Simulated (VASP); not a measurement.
# Diamond under biaxial (111) strain from −2 % to +2 %: normal strain, stress, strain energy and moduli at LDA

Every member is diamond: each carbon atom has four sp³ bonds, one along the (111) normal and three leaning close to the plane. In-plane strain therefore loads three bonds directly and the fourth mainly through the bond angles.

My brief is a clamped, nearly flawless single-crystal (111) membrane, 100 nm thick, that serves as a tension standard. It must carry at least 500 N/m of edge, and its stress must stay within 6 % of the straight line through small strains, so that a strain reading can be turned into a force with one constant. Among the rows that pass, I take the one with the highest tension. Strain is measured from the LDA-relaxed crystal, and the stress is the in-plane stress with the normal face free.

## Calculations

The start is a typed prototype cell. The crystal was relaxed with LDA. Equal strain is imposed in the (111) plane; the strain along the normal is adjusted until the normal stress vanishes, and the atoms are relaxed with LDA. VASP 6.6.1, plane waves with PAW, cutoff 600 eV, no spin polarisation, no spin-orbit coupling, k mesh 14×14×14, static lattice.

Notes on method and selection:

- Runs that did not converge, have known faults or may not be shown are not listed, and runs on Ansatz's PAW sets soft_1 and soft_2 are kept to separate tables.

Columns:

- strain (%): strain in the plane (tension positive).
- gap (eV): band gap on the k mesh at LDA.
- normal strain (%): strain along the normal.
- stress (GPa): in-plane stress, tension positive.
- strain energy (meV/atom): energy per atom above the relaxed crystal.

## Computed values

| member | strain (%) | gap (eV) | normal strain (%) | stress (GPa) | strain energy (meV/atom) |
| --- | --- | --- | --- | --- | --- |
| −2 % | −2.0 | 4.193 | 0.244 | −28.98 | 20.31 |
| −1.5 % | −1.5 | 4.193 | 0.182 | −21.26 | 11.50 |
| −1 % | −1.0 | 4.189 | 0.121 | −13.87 | 5.24 |
| −0.5 % | −0.5 | 4.180 | 0.061 | −6.80 | 1.41 |
| 0 % | 0.0 | 4.166 | 0.003 | −0.04 | 0.00 |
| +0.5 % | 0.5 | 4.129 | −0.055 | 6.43 | 0.82 |
| +1 % | 1.0 | 4.094 | −0.110 | 12.61 | 3.87 |
| +1.5 % | 1.5 | 4.060 | −0.165 | 18.51 | 9.03 |
| +2 % | 2.0 | 4.027 | −0.218 | 24.14 | 16.25 |

normal strain (%) against strain (%):

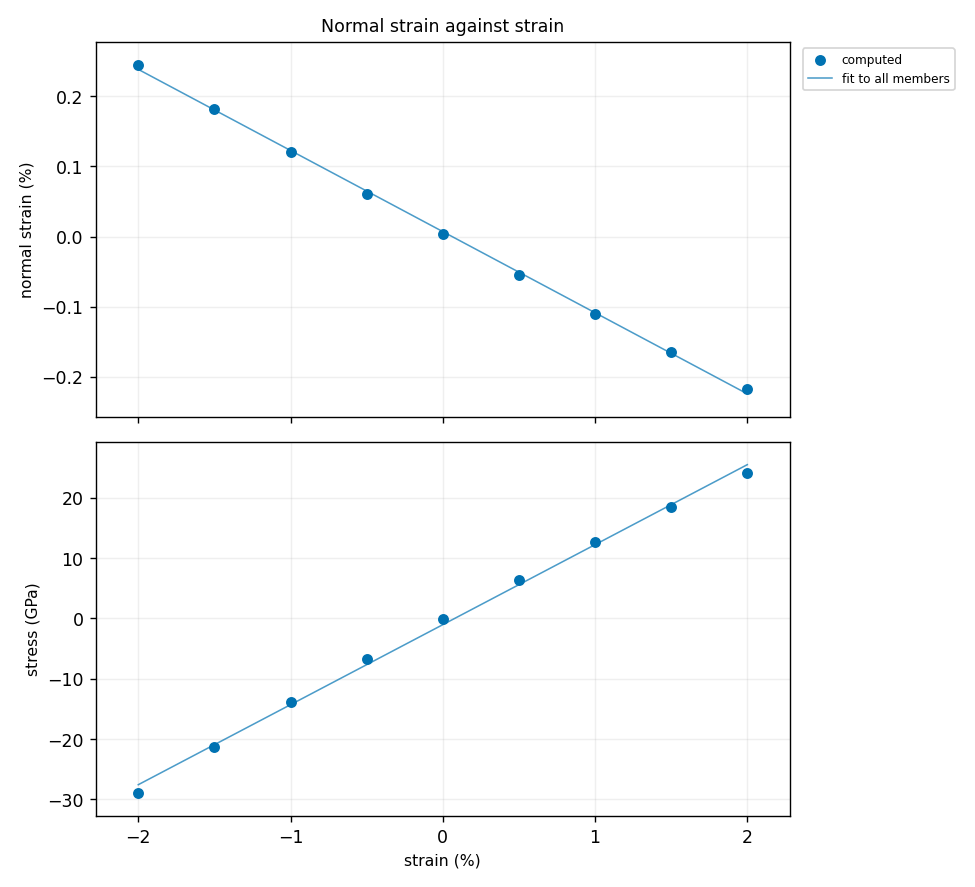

Least-squares fits to the whole series, with x = strain (%); R² and errors in the fitted variable (y, or ln y where the fit is in ln y):

| y | members | fit | R² | rms residual | leave-one-out rms | the same for the mean of the others |
| --- | --- | --- | --- | --- | --- | --- |
| normal strain (%) | 9 | y = 0.007000 − 0.1156 x | 1.00 | 0.0038 | 0.0054 | 0.17 |
| stress (GPa) | 9 | y = −1.029 + 13.27 x | 1.00 | 0.87 | 1.2 | 19 |

## Why the values move as they do

The stress climbs from −28.98 GPa at −2 % to 24.14 GPa at +2 %. From the ±0.5 % rows the small-strain biaxial modulus is M = (6.43 + 6.80) / 0.010 = 1323 GPa. The normal strain runs the other way and stays small: R = −(normal strain)/(in-plane strain) = (0.244 + 0.218) / 4.0 = 0.1155.

These two numbers fix two moduli of the cubic crystal. The volume part gives B = 2M / [3(2 − R)] = 2 × 1323 / (3 × (2 − 0.1155)) = 468 GPa. The trigonal shear gives C₄₄ = M / [2(1 + R)] = 1323 / (2 × (1 + 0.1155)) = 593 GPa. C₁₁ and C₁₂ enter only as the sum C₁₁ + 2C₁₂ = 3B, so this strain does not give them singly. The normal contracts little because diamond resists a change of bond angle so strongly: the crystal accepts a larger volume rather than a large change of shape.

The stress is not quite linear. Per percent of strain, M is 1323 / 100 = 13.23 GPa. Stretched bonds soften and compressed bonds stiffen, so the stress at +2 % is 8.8 % smaller than M times the strain, and at −2 % it is larger in size by 28.98 / (13.23 × 2.0) − 1 = 9.5 %. At ±1 % the departures are about 5 %. A parabola through the 0 % and ±1 % rows has the linear coefficient (12.61 + 13.87) / 2 = 13.24 GPa per % and the quadratic coefficient (12.61 − 13.87) / 2 + 0.04 = −0.59 GPa per %². With x in %, stress = −0.04 + 13.24 x − 0.59 x² (GPa) then meets the nine rows with a typical miss of 0.04 GPa, against 0.87 GPa for the straight fit and 19 GPa for the mean of the others. The intercept of −1.029 GPa in the straight fit is this curvature, not a stress in the relaxed crystal.

The strain energy, averaged over the two signs, is close to quadratic: (20.31 + 16.25) / (2 × 4) = 4.57 meV/atom per %² at 2 %, and (5.24 + 3.87) / 2 = 4.56 at 1 %.

## Members off the line

Largest departures from the fit to the whole series:

| member | normal strain (%) | fit | computed − fit | in rms residuals |
| --- | --- | --- | --- | --- |
| +2 % | −0.218 | −0.224 | +0.006 | 1.6 |
| −2 % | 0.244 | 0.238 | +0.006 | 1.5 |
| +0.5 % | −0.055 | −0.051 | −0.004 | 1.1 |
| 0 % | 0.003 | 0.007 | −0.004 | 1.1 |

No row leaves the stress or normal-strain trend; the small departures in normal strain follow a smooth curvature. The strain energy is odd at small strain. At ±0.5 % it is 0.82 meV/atom in tension and 1.41 in compression, a far larger relative asymmetry than the stress allows, and the relative asymmetry shrinks as the strain grows. That is the mark of a term linear in strain.

The likely cause is the finite plane-wave basis. The stress is a derivative at a fixed set of plane waves, while at a fixed cutoff a larger cell receives more of them and its energy drops slightly. The sign fits. From the ±0.5 % rows the linear term lowers the energy by (1.41 − 0.82) / 1.0 = 0.59 meV/atom per % of tension. The energy minimum then lies near 0.59 / (2 × 4.56) = 0.06 % tension instead of at zero. I trust the moduli from the stress, and I use the energies only as averages over both signs.

## Choosing a member

I convert stress to tension per length of edge with N = stress × t and t = 100 nm, so 1 GPa gives 100 N/m. The departure from linearity is 1 − stress / (13.23 x), with stress in GPa and x in %; the constant is M per percent of strain.

The four compressed rows would buckle a membrane, and the unstrained row carries no useful tension. Four rows remain:

- **+0.5 %:** N = 6.43 × 100 = 643 N/m; departure 1 − 6.43 / (13.23 × 0.5) = 2.8 %. It passes.
- **+1 %:** N = 12.61 × 100 = 1261 N/m; departure 1 − 12.61 / (13.23 × 1.0) = 4.7 %. It passes.
- **+1.5 %:** N = 18.51 × 100 = 1851 N/m; departure 1 − 18.51 / (13.23 × 1.5) = 6.7 %. It fails on linearity.
- **+2 %:** N = 24.14 × 100 = 2414 N/m; departure 1 − 24.14 / (13.23 × 2.0) = 8.8 %. It fails on linearity.

Static LDA makes diamond too stiff by roughly 5 % against room temperature. Scaled down by 1 − 0.05 = 0.95, the two passing rows give 1261 × 0.95 = 1198 N/m and 643 × 0.95 = 611 N/m. The uncertain strain origin, 0.06 %, is worth another 0.06 × 13.23 = 0.8 GPa, or 80 N/m. Both rows still clear 500 N/m. A common scale error cancels in the departure from linearity, so that test is safer than the absolute tension.

My pick is +1 %, and the runner-up is +0.5 %. A linearity limit of 4 % would reverse them, and a limit of 7 % would admit +1.5 % and make it the pick. If the curved law were used for calibration, the linearity limit would lose its purpose and +2 % would carry the most.

Fracture could overturn the whole selection. Ordinary grown diamond films break at a few GPa, roughly, because cracks start at flaws and grain boundaries. Such a film might not survive even the +0.5 % row, which is why the brief asks for a nearly flawless crystal.

## What to take away

Between −1 % and +1 %, one modulus gives the stress at the calculated rows to about 5 %; out to ±2 % a quadratic term is needed. B and C₄₄ follow from the stress and the normal strain together.

Two omitted effects exceed the spread of a column. Zero-point motion adds roughly 0.2 eV/atom, against at most 20.31 meV/atom of strain energy; most of it is constant, but the rest lengthens the cell edges by a few tenths of a percent. LDA also places the gap too low by more than 1 eV, while the gap column spans only 0.166 eV.
